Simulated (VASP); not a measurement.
# Pressure and energy of ScAl3 (Pm-3m) within 6% of its equilibrium volume, PBEsol + D3(BJ)

The pressure and the energy of cubic ScAl3 are calculated at seven volumes, from about 6% below to about 6% above equilibrium. The volume change is measured from the minimum of the Birch-Murnaghan fit, 16.24 Å³ per atom, and the energy from the lowest row of the series. Positive pressure means a compressed cell.

The problem is to find the stiffness of the crystal, to explain why compression and expansion are not mirror images, and to see whether pressures and energies agree. The answer matters for aluminium alloys strengthened by small ScAl3 precipitates, where the misfit between particle and matrix strains both, and the bulk modulus helps to set the elastic energy stored.

## Systems and settings

A cell from the Materials Project database, relaxed at this level and then scaled evenly, fractional positions kept. VASP 6.6.1, plane waves with PAW, PBEsol + D3(BJ), cutoff 400 eV, k mesh 5×5×5, no spin polarisation, no spin-orbit coupling, static lattice. A Birch-Murnaghan fit to the energies has its minimum at 16.24 Å³ per atom.

Notes on method and selection:

- The pressure is that of a finite plane-wave basis, so it need not vanish exactly at the minimum of the energy.
- Only series whose fit has its minimum inside the range and an error under 0.5 meV per atom are shown.
- Where rows or columns differ in functional or spin-orbit coupling, non-spherical gradient terms in the PAW spheres (LASPH) may be on in some and off in others.
- Runs that did not converge, have known faults or may not be shown are not listed, and runs on Ansatz's PAW sets soft_1 and soft_2 are kept to separate tables.

Columns:

- volume change (%): volume relative to the fitted equilibrium volume.
- pressure (GPa): pressure from the stress tensor (positive: compressed).
- energy (meV/atom): energy per atom above the lowest point of the series.

Input lines of one member:

```
PREC = Accurate
ENCUT = 400
EDIFF = 1E-06
NELM = 100
ISMEAR = 1
SIGMA = 0.2
LREAL = .FALSE.
ALGO = Normal
GGA = PS
IVDW = 12
NBANDS = 16
LASPH = .TRUE.
LORBIT = 11
KPAR = 4
ISIF = 2
```

Command (options for logging and memory left out): `mpirun -np 4 vasp_std`

## Table of results

| member | volume change (%) | pressure (GPa) | energy (meV/atom) |
| --- | --- | --- | --- |
| 15.26 Å³ | −6.07 | 7.03 | 20.80 |
| 15.58 Å³ | −4.07 | 4.45 | 9.04 |
| 15.91 Å³ | −2.07 | 2.10 | 2.26 |
| 16.23 Å³ | −0.07 | −0.02 | 0.00 |
| 16.56 Å³ | 1.92 | −1.94 | 1.83 |
| 16.88 Å³ | 3.92 | −3.67 | 7.35 |
| 17.20 Å³ | 5.92 | −5.24 | 16.25 |

pressure (GPa) against volume change (%):

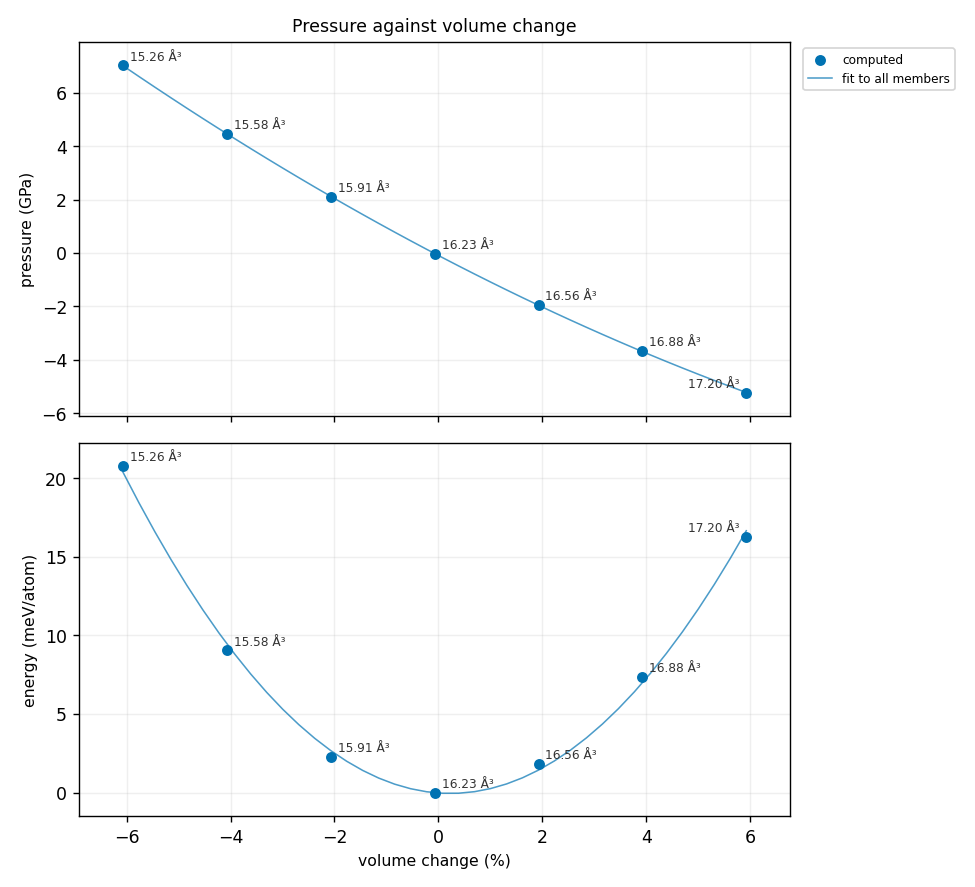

Least-squares fits to the whole series, with x = volume change (%); R² and errors in the fitted variable (y, or ln y where the fit is in ln y):

| y | members | fit | R² | rms residual | leave-one-out rms | the same for the mean of the others |
| --- | --- | --- | --- | --- | --- | --- |
| pressure (GPa) | 7 | y = −0.094408 − 1.0167 x + 0.025422 x² | 1.00 | 0.016 | 0.042 | 4.8 |
| energy (meV/atom) | 7 | y = −0.03269 − 0.2348 x + 0.5155 x² | 1.00 | 0.37 | 1.0 | 8.5 |

## Mechanism

The pressure falls from row to row, from 7.03 GPa at −6.07% to −5.24 GPa at +5.92%. The energy rises on both sides of the row at −0.07%.

**Stiffness.** The bulk modulus is $B=-V\,dP/dV$. The two rows on either side of the centre give (2.10 + 1.94) / (1.92 + 2.07) = 1.01 GPa per percent, so $B_0$ ≈ 100 × 1.01 = 101 GPa.

**Curvature.** The slope is not constant. It is (7.03 − 4.45) / 2.00 = 1.29 GPa per percent between the two smallest cells and (5.24 − 3.67) / 2.00 = 0.79 between the two largest. With $\varepsilon=\Delta V/V_0$,

$$P\approx -B_0\,\varepsilon+\tfrac12 B_0(1+B_0')\,\varepsilon^2 .$$

The coefficients of the pressure fit then give $1+B_0'$ = 200 × 0.025422 / 1.0167 = 5.00, so $B_0'$ ≈ 4.0.

**Energy.** Integrating the pressure gives

$$E\approx\tfrac12 B_0V_0\,\varepsilon^2\left[1-\tfrac13(1+B_0')\,\varepsilon\right].$$

With 1 eV/Å³ = 160.2 GPa, the prefactor is 0.5 × 101 / 160.2 × 16.24 = 5.12 eV. For $x$ in percent the quadratic coefficient is 0.512 meV per atom and the cubic one 0.512 × 5.00 / 300 = 0.00853, so $E$ = 0.512 $x^2$ − 0.00853 $x^3$ meV per atom. Though its stiffness and curvature come from the pressures, this formula meets all seven energies within 0.1 meV per atom, with an rms miss of about 0.03, against a scatter of 8.5 about the mean of the others.

**Cause.** In a simple metal the kinetic energy of the electrons grows as $V^{-2/3}$ on compression, while the electrostatic attraction grows only as $V^{-1/3}$. Repulsion therefore gains on attraction as the cell shrinks, and the crystal stiffens. An energy made of one term in $V^{-m}$ and one in $V^{-n}$ has $B_0'=m+n+2$ at its minimum, so these two terms alone would give $B_0'=3$. The sign is right, but the model omits the ion cores and the d electrons of scandium, so the full value is not expected from it.

## Members off the line

Largest departures from the fit to the whole series:

| member | pressure (GPa) | fit | computed − fit | in rms residuals |
| --- | --- | --- | --- | --- |
| 16.88 Å³ | −3.67 | −3.69 | +0.02 | 1.2 |
| 15.91 Å³ | 2.10 | 2.12 | −0.02 | 1.2 |
| 17.20 Å³ | −5.24 | −5.22 | −0.02 | 1.1 |
| 15.26 Å³ | 7.03 | 7.01 | +0.02 | 1.0 |

No row breaks the trend. The largest departures from the pressure fit are 0.02 GPa, and their signs run in the order left by a missing cubic term: positive at the smallest cell, negative at the next two, positive at +1.92% and +3.92%, negative at the largest.

The same pattern is plainer in the energy, where the parabola misses six of the seven rows by about 0.4 meV per atom. It also puts the minimum at 0.2348 / (2 × 0.5155) = +0.23%, which is an artefact of fitting a lopsided curve with a symmetric one.

The centre row shows a different, numerical effect. At −0.07% the cell is slightly smaller than at the energy minimum, so a pressure near +0.07 GPa is expected, yet −0.02 GPa is found. The likeliest reason is the finite plane-wave basis. The stress is evaluated for a fixed set of waves, whose effective cutoff drops as the cell expands. This adds a spurious pull inwards, and the pressure comes out about 0.09 GPa too low.

## Short exercises

**Which volume corresponds to a pressure of 5 GPa?**

The target lies between the rows at 4.45 and 7.03 GPa. A straight line between them gives a compression of 4.07 + 2.00 × (5.00 − 4.45) / (7.03 − 4.45) = 4.50%. As a check, $x$ = −4.50 in the pressure fit gives −0.094 + 1.0167 × 4.50 + 0.025422 × 4.50 × 4.50 = 5.00 GPa. The volume is 16.24 × (1 − 4.50 / 100) = 15.51 Å³ per atom.

**What pressure and energy result if the lattice constant is set 1% too long?**

The volume grows as the cube of the length, so the change in percent is 100 × (1.01 × 1.01 × 1.01 − 1) = 3.03. The pressure fit gives −0.094 − 1.0167 × 3.03 + 0.025422 × 3.03 × 3.03 = −2.94 GPa. The energy formula gives 0.512 × 3.03 × 3.03 − 0.00853 × 3.03 × 3.03 × 3.03 = 4.46 meV per atom. An error that looks small in the length is thus plain in the pressure, while its cost in energy is only a few meV per atom.

**Is a cutoff of 400 eV good enough to relax the cell by its stress?**

The pressure fit gives −0.094 GPa at the energy minimum. Zero stress is therefore reached at a volume smaller by 0.094 / 1.0167 = 0.09%, which is 0.09 / 3 = 0.03% in the lattice constant. For most structural work that is negligible. Where pressures of a tenth of a GPa matter, a higher cutoff or a fit to the energies is the better choice.

## Conclusions and limits

Within about 6% of equilibrium, a bulk modulus near 101 GPa and a pressure derivative near 4 describe both columns. A parabola in the energy is adequate only for rough work, since it misses the stiffening on compression.

The lattice is static. Zero-point and thermal vibrations would add a positive pressure, enlarge the equilibrium volume and usually lower the bulk modulus. The D3 term adds attraction to PBEsol, which already gives good volumes for many metals without it, so the calculated cell may be somewhat too small and too stiff. No measured volume or modulus is compared here.

The smooth curves show that the rows are consistent with one another. They do not show that the 5×5×5 k mesh is converged, because an error common to all rows would leave the curves just as smooth.

[Logs are printed without paths, hosts, clocks, repeated set-up lines and the standing remarks that a program may print on its own settings, such as how far it seeks lower states.]
